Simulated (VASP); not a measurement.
# Pressure and energy of fcc Rh against volume with r2SCAN + rVV10: a worked problem on stress and energy slope

A crystal at rest should have zero pressure at the volume where its energy is lowest, yet in a plane-wave calculation the two conditions can pick slightly different volumes. The problem is to find how pressure and energy change as the cell of fcc Rh is scaled evenly, and whether the two columns agree. The answer matters wherever rhodium is strained, as in thin films and supported catalysts, because the same curve gives the bulk stiffness, one ingredient of the stress stored by a misfit. Volume changes are counted from the minimum of the fit to the energies, 13.65 Å³ per atom. Pressure is positive in compression, and energies are counted from the lowest point of the series.

## Computational details

A cell from a diffraction database, relaxed at this level and then scaled evenly, fractional positions kept. VASP 6.6.1, plane waves with PAW, r2SCAN + rVV10, cutoff 400 eV, k mesh 12×12×12, no spin polarisation, no spin-orbit coupling, static lattice. A Birch-Murnaghan fit to the energies has its minimum at 13.65 Å³ per atom.

Notes on method and selection:

- The pressure is that of a finite plane-wave basis, so it need not vanish exactly at the minimum of the energy.
- Only series whose fit has its minimum inside the range and an error under 0.5 meV per atom are shown.
- Where rows or columns differ in functional or spin-orbit coupling, non-spherical gradient terms in the PAW spheres (LASPH) may be on in some and off in others.
- Runs that did not converge, have known faults or may not be shown are not listed, and runs on Ansatz's PAW sets soft_1 and soft_2 are kept to separate tables.

Columns:

- volume change (%): volume relative to the fitted equilibrium volume.
- pressure (GPa): pressure from the stress tensor (positive: compressed).
- energy (meV/atom): energy per atom above the lowest point of the series.

## Computed values

| member | volume change (%) | pressure (GPa) | energy (meV/atom) |
| --- | --- | --- | --- |
| 12.78 Å³ | −6.36 | 21.47 | 57.7 |
| 13.05 Å³ | −4.37 | 13.39 | 26.0 |
| 13.33 Å³ | −2.38 | 6.23 | 7.3 |
| 13.60 Å³ | −0.39 | ? | ? |
| 13.87 Å³ | 1.61 | −5.70 | 3.0 |
| 14.14 Å³ | 3.60 | −10.64 | 14.8 |
| 14.41 Å³ | 5.59 | −14.99 | 34.5 |

Cells marked ? are withheld until the estimate has been made.

Least-squares fits to the members shown, with x = volume change (%); R² and errors in the fitted variable (y, or ln y where the fit is in ln y):

| y | members | fit | R² | rms residual | leave-one-out rms | the same for the mean of the others |
| --- | --- | --- | --- | --- | --- | --- |
| pressure (GPa) | 6 | y = −1.266 − 2.964 x + 0.09382 x² | 1.00 | 0.088 | 0.25 | 16 |
| energy (meV/atom) | 6 | y = −0.5095 − 0.7318 x + 1.292 x² | 1.00 | 1.3 | 3.7 | 22 |

## Mechanism

Solution, first part: the shape of the curves. The pressure falls from 21.47 GPa at the smallest cell to −14.99 GPa at the largest, and it falls ever more slowly. The two smallest cells lie −4.37 + 6.36 = 1.99 % apart, and the slope between them is (13.39 − 21.47) / 1.99 = −4.06 GPa per percent of volume; between the two largest it is (−14.99 + 10.64) / 1.99 = −2.19 GPa per percent. Across the middle, over 1.61 + 2.38 = 3.99 %, it is (−5.70 − 6.23) / 3.99 = −2.99 GPa per percent, which corresponds to a bulk modulus near 300 GPa, that of a stiff metal.

The softening on expansion follows from how the forces depend on distance. Compression raises the kinetic energy of the electrons and the repulsion between overlapping ions, both of which climb steeply as the atoms approach. Expansion works against the bonding of the partly filled 4d band, which weakens more gently with distance. The energy shows the same asymmetry: 57.7 meV per atom at −6.36 %, but 34.5 meV per atom at 5.59 %. The ratio is 57.7 / 34.5 = 1.67, where a parabola would give only (6.36 / 5.59)² = 1.29.

Second part: do the columns agree? The pressure should equal minus the slope of the energy. One step of 1.99 % is 1.99 × 13.65 / 100 = 0.272 Å³, and 1 GPa Å³ is 6.24 meV, so a pressure of 1 GPa does 0.272 × 6.24 = 1.70 meV of work per step. Between the two smallest cells the energy gives (57.7 − 26.0) / 1.70 = 18.6 GPa, while the mean of the two stresses is (21.47 + 13.39) / 2 = 17.4 GPa. Between the two largest it gives −(34.5 − 14.8) / 1.70 = −11.6 GPa, against a mean stress of −12.8 GPa.

The stress is thus lower by about 1.2 GPa at both ends. This is the sign expected of a finite basis: at fixed cutoff a larger cell gains plane waves, which lowers its energy a little further, and the stress tensor leaves out that gain. A single cutoff cannot prove this cause; if it is right, the gap should shrink at a higher cutoff, whereas a gap left by an inexact stress term of the functional would stay.

## An estimate before looking

Plain estimates from the members shown:

- 13.60 Å³, fit at x = −0.39: −0.10 GPa
- 13.60 Å³, straight-line interpolation between 13.33 Å³ and 13.87 Å³: w = (−0.39 − (−2.38)) / (1.61 − (−2.38)) = 0.499, so 6.23 + 0.499 × (−5.70 − 6.23) = 0.28 GPa

Third part: the pressure at 13.60 Å³. The straight line between the neighbours gives 0.28 GPa, which must be too high, since the pressure curve bends upwards and a chord lies above it. The quadratic fit gives −0.10 GPa, but its leave-one-out error is 0.25 GPa because the curvature itself changes along the series.

The volumes are evenly spaced, so a cubic through the two nearest members on each side is the better route. At the midpoint it gives

p = [4 × (6.23 − 5.70) − (13.39 − 10.64)] / 6 = −0.105 GPa.

The same kind of cubic can be tried on a shown member. For 13.33 Å³, from the two smallest cells and those at 13.87 and 14.14 Å³, it gives

−0.3 × 21.47 + 13.39 + 0.5 × (−5.70) − 0.2 × (−10.64) = 6.23 GPa,

in agreement with the table. The mirror-image test on 13.87 Å³ gives −0.3 × (−14.99) − 10.64 + 0.5 × 6.23 − 0.2 × 13.39 = −5.71 GPa, against −5.70 GPa in the table.

A value close to zero is also what the origin of the cell requires. The member at 13.60 Å³ is the unscaled one, relaxed on the stress, and a small remainder is normal once the basis is set up afresh for the final volume. No further shift is applied. The tests miss by 0.01 GPa or less; rounding of the volume change by 0.005 % adds up to 0.005 × 2.99 = 0.015 GPa, so the error is set at 0.02 GPa.

**Committed estimate, 13.60 Å³: pressure = −0.10 ± 0.02 GPa.**

## The answer

| member | volume change (%) | pressure (GPa) | energy (meV/atom) |
| --- | --- | --- | --- |
| 13.60 Å³ | −0.39 | −0.10 | 0.0 |

| member | estimate | pressure (GPa) | computed | estimate − computed | miss in error bars |
| --- | --- | --- | --- | --- | --- |
| 13.60 Å³ | committed | −0.10 | −0.10 | 0.00 | 0.0 |
| 13.60 Å³ | fit | −0.10 | −0.10 | 0.00 |  |
| 13.60 Å³ | interpolation | 0.28 | −0.10 | +0.38 |  |

pressure (GPa) against volume change (%):

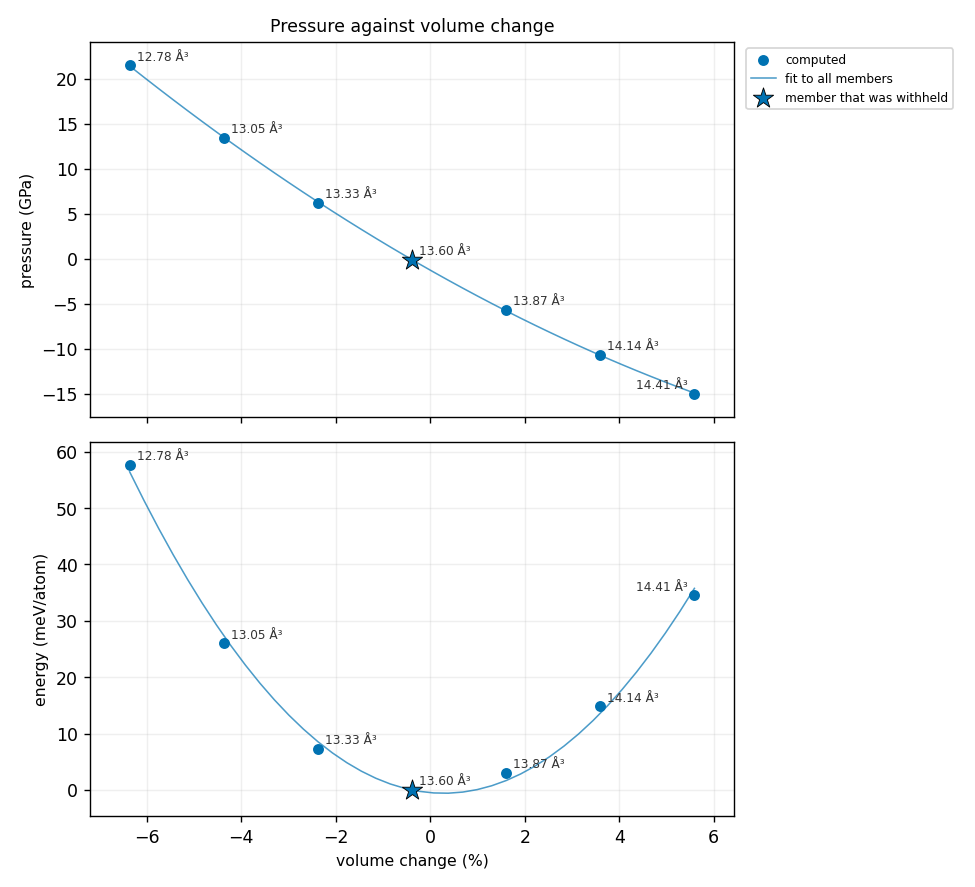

The computed pressure is −0.10 GPa, equal to the estimate and well inside its error bar of 0.02 GPa. The quadratic fit gives the same value, so the cubic through four neighbours gained nothing over it here. The straight line is 0.38 GPa too high. Its miss follows from the curvature of the pressure curve, 0.09382 × 1.99 × 2.00 = 0.37 GPa, as expected for a chord above a curve that bends upwards.

The result also fits the account of the finite basis. The stress nearly vanishes at 13.60 Å³, while the fitted energy has its minimum at 13.65 Å³, where the pressure fit gives −1.27 GPa. That is close to the gap of about 1.2 GPa found between stress and energy slope at both ends of the series. The two columns therefore differ by a nearly constant pressure, with the sign that an incomplete plane-wave basis produces.

## Where the trend breaks

None stands out. The quadratic fit misses the pressures by at most about 0.1 GPa and the energies by about 1.3 meV per atom, in both columns too low at the smallest cell and too high at the largest. This regular pattern comes from the missing cubic term: the curvature itself weakens as the cell expands.

## Closing remarks

Between −6.36 and 5.59 % the pressure is a smooth curve, and near equilibrium 1 % of volume costs about 3 GPa. A cubic through four neighbours reproduced each of the three inner members tried to 0.01 GPa or better, so a further volume well inside the range can be estimated about as closely.

For the lattice parameter, the energy minimum gives (4 × 13.65)^(1/3) = 3.794 Å and the cell relaxed on the stress (4 × 13.60)^(1/3) = 3.789 Å. The choice between them matters little for most uses, but pressures read from the stress should be raised by about 1.2 GPa before they are compared with the energy curve.

The static lattice leaves out a pressure that is small beside the 36 GPa spanned by the table. Lattice vibrations at room temperature would add roughly 2 GPa of outward pressure (a Grüneisen parameter of about 2 times a vibrational energy of roughly 80 meV per atom, divided by the volume per atom), which enlarges the equilibrium volume by somewhat under 1 %.
